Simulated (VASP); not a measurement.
# Convergence of energy and pressure with the k mesh for rocksalt NaCl, r2SCAN in VASP

The energy and pressure of rocksalt NaCl are calculated at one fixed cell on eight k meshes, from 2×2×2 to 13×13×13, with the r2SCAN functional. I use them to see how fast both quantities settle and what the settling costs. Every error is measured against the 13×13×13 run, so the zero in that row is a matter of definition. The energy error is below 1 meV/atom from 4×4×4 on, and the pressure error is then below 0.02 GPa. One row is out of order: 5×5×5 lies only 0.0067 meV/atom from the reference, closer than 6×6×6 at 0.0306 and even 10×10×10 at −0.0100. A coarser mesh should not do better than these.

## Computational details

Single-point runs at fixed cell and atoms; within a crystal every other setting is the same. Program: VASP 6.6.1, plane waves and PAW (data sets made for PBE of release 64), scalar-relativistic without spin-orbit coupling, no spin polarisation. Cutoff 400 eV; on the k meshes the divisions times the cell-vector length are 7 Å or more. Occupations: Fermi-Dirac smearing of 0.05 eV. Times are rough, from shared x86 server processors.

Notes on method and selection:

- The reference is the densest mesh run, which need not be fully converged.
- The space group named is that of the cell as run, which can be lower than that of the source structure.
- Runs that did not converge, have known faults or may not be shown are not listed, and runs on Ansatz's PAW sets soft_1 and soft_2 are kept to separate tables.

Columns:

- k-mesh length (Å): k-mesh length, the least over the axes of divisions times cell-vector length.
- k points: irreducible k points.
- energy error (meV/atom): energy per atom, extrapolated to zero smearing as the program prints it, minus that of the run on the densest mesh of the same crystal.
- pressure error (GPa): pressure minus that of the run on the densest mesh of the same crystal, compression positive.
- cost (core-s): processor time of the run, shared machines, rough.

Input lines of one member:

```
PREC = Accurate
ENCUT = 400
EDIFF = 1E-06
NELM = 100
ISMEAR = -1
SIGMA = 0.05
LREAL = .FALSE.
ALGO = Normal
METAGGA = R2SCAN
LASPH = .TRUE.
NBANDS = 13
LORBIT = 11
ISIF = 2
```

Command (options for logging and memory left out): `vasp_std`

## Numbers

| member | k-mesh length (Å) | k points | energy error (meV/atom) | pressure error (GPa) | cost (core-s) | remark |
| --- | --- | --- | --- | --- | --- | --- |
| k 2×2×2 | 7.9 | 3 | 122.8147 | 1.96224 | 6.1 |  |
| k 3×3×3 | 11.9 | 4 | 8.1037 | 0.17602 | 9.3 |  |
| k 4×4×4 | 15.9 | 8 | 0.7994 | 0.01439 | 13 |  |
| k 5×5×5 | 19.9 | 10 | 0.0067 | 0.00177 | 15 |  |
| k 6×6×6 | 23.8 | 16 | 0.0306 | −0.00140 | 20 |  |
| k 8×8×8 | 31.8 | 29 | 0.0170 | −0.00085 | 34 |  |
| k 10×10×10 | 39.7 | 47 | −0.0100 | 0.00052 | 51 |  |
| k 13×13×13 | 51.7 | 84 | 0.0000 | 0.00000 | 84 | known phase |

energy error (meV/atom) against k-mesh length (Å):

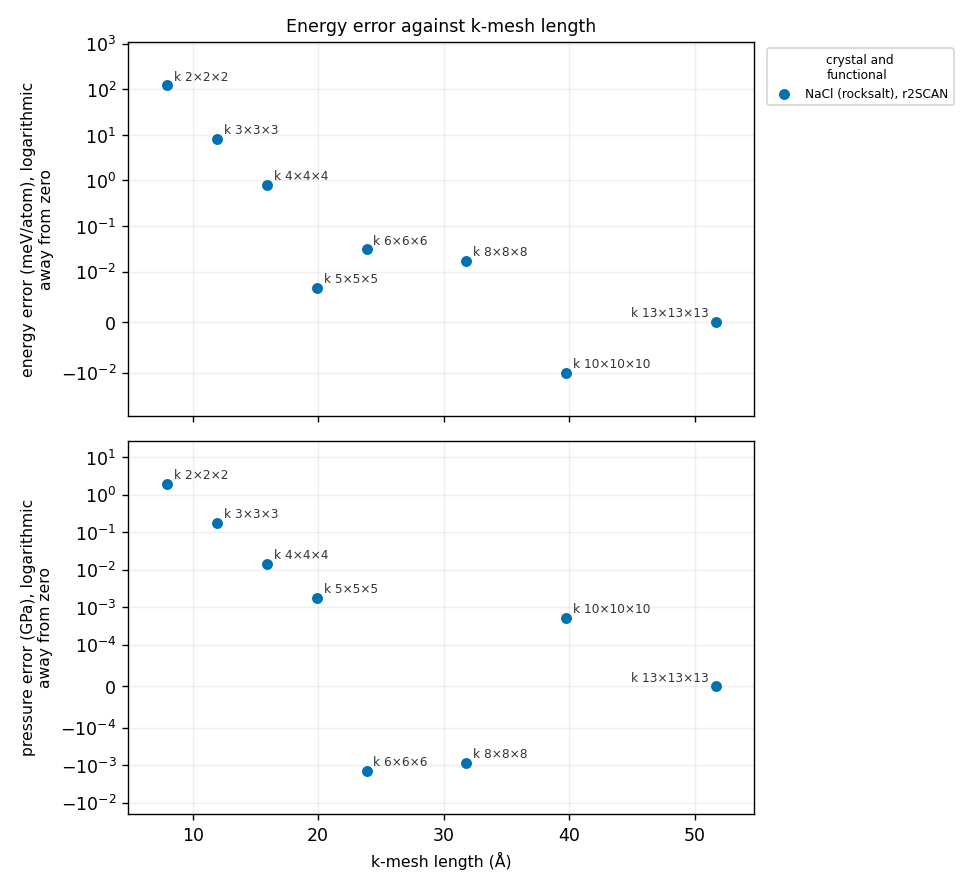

## The trend and its physics

The first three meshes show a steep fall. The energy error drops by a factor of 122.8147 / 8.1037 = 15.2 from 2×2×2 to 3×3×3, and by 8.1037 / 0.7994 = 10.1 from there to 4×4×4. The pressure error drops by factors of 1.96224 / 0.17602 = 11.1 and 0.17602 / 0.01439 = 12.2 over the same steps.

Such a fall is what theory gives for an insulator. With all valence bands filled, the quantity summed over k is smooth and periodic. A uniform mesh then goes wrong only through Fourier components that belong to hops over the mesh length L or further, which it counts into the average by mistake, and in an insulator these die off exponentially. The error goes roughly as exp(−L/λ), and the step from 3×3×3 to 4×4×4 gives λ = (15.9 − 11.9) / ln 10.1 = 1.7 Å.

The positive sign of the energy error also has a likely reason. These meshes contain Γ, where the top of the chlorine 3p band lies, and a coarse mesh gives that point too much weight. The pressure error is positive because expanding the cell at fixed divisions lengthens L and lowers the energy error, which acts as an outward push.

If the last factor held for one more step, 5×5×5 should have given 0.7994 / 10.1 = 0.079 meV/atom. The table has less than a tenth of that. The pressure shows no such gap: the same reasoning gives 0.01439 / 12.2 = 0.0012 GPa, against 0.00177 in the table.

## Members off the line

From 6×6×6 on the exponential fall has ended, and a small remainder is left. Its signs are telling. On the coarse meshes energy and pressure errors are both positive, but at 6×6×6, 8×8×8 and 10×10×10 they are opposite. The ratio of pressure to energy error, in GPa per meV/atom, is there −0.00140 / 0.0306 = −0.046, −0.00085 / 0.0170 = −0.050 and 0.00052 / (−0.0100) = −0.052. On the three coarsest meshes it is 1.96224 / 122.8147 = 0.016, 0.17602 / 8.1037 = 0.022 and 0.01439 / 0.7994 = 0.018. The remainder therefore seems to have a different source from the coarse-mesh error.

## Cost against accuracy

The time follows the number of irreducible k points, at about (84 − 6.1) / (84 − 3) = 0.96 core-s for each, plus a few core-s that every run needs. Going from 2×2×2 to 4×4×4 costs 7 core-s more and removes 122.8147 − 0.7994 = 122.0 meV/atom of error. Going on from 4×4×4 to 13×13×13 costs 71 core-s more and removes only 0.8 meV/atom.

For a single run of this small cell even the densest mesh is affordable. For a long series I would take 4×4×4 where 1 meV/atom is enough, and 6×6×6 at 20 core-s where a tenth of that is wanted. Beyond 6×6×6 the extra time buys changes of a few hundredths of a meV/atom at most.

## Review of the odd result

The 5×5×5 energy is 0.079 − 0.007 = 0.072 meV/atom below my estimate. Smearing drops out as a cause, since the wide gap leaves no partly filled bands. An unconverged reference would shift all rows alike, and a shift of 0.07 would spoil the agreement of the three denser meshes with it.

My main suspect is the plane-wave basis. At a fixed cutoff the number of plane waves differs from one k point to the next, so each mesh has a slightly different average basis. A poorer basis raises the energy and, through the Pulay stress, lowers the pressure, which is the sign pattern of the dense meshes.

I can split the 5×5×5 errors into a sampling part s, with the 4×4×4 ratio of 0.018, and a basis part b, with a ratio of −0.05:

s = (0.00177 + 0.05 × 0.0067) / (0.018 + 0.05) = 0.031 meV/atom

b = 0.0067 − 0.031 = −0.024 meV/atom

On this reading two errors of ordinary size nearly cancel. The rest of the shortfall, 0.079 − 0.031 = 0.048, would belong to my extrapolation, which rests on a single factor.

The cheapest check is 5×5×5 with a tighter EDIFF, at little more than 15 core-s. The present threshold is 0.0005 meV/atom, so I expect no visible change; a shift of several hundredths would put the blame on self-consistency.

Next comes a 7×7×7 mesh, at between 20 and 34 core-s. Its sampling error should be negligible. Errors of opposite sign in the ratio −0.05 would support the basis, and errors of equal sign would speak against it.

The dearest is a higher cutoff for 5×5×5, 6×6×6 and the reference, at more than 15 + 20 + 84 = 119 core-s. If the basis is responsible, the 5×5×5 error rises towards 0.03 and the 6×6×6 error shrinks. If 5×5×5 stays near 0.007, its sampling error really is that small.

## Rules of thumb and their limits

For this cell, 4×4×4 is good to 1 meV/atom and 0.02 GPa, and every mesh from 5×5×5 on agrees with the reference to within 0.04 meV/atom and 0.002 GPa. I would not rank the meshes within that last group by energy. The exponential fall relies on the gap, so these mesh lengths should not be carried over to a metal.

The errors also say nothing about how well the cutoff itself is converged, since all rows share the same 400 eV and most of that error cancels in the differences.

[Logs are printed without paths, hosts, clocks, repeated set-up lines and the standing remarks that a program may print on its own settings, such as how far it seeks lower states.]
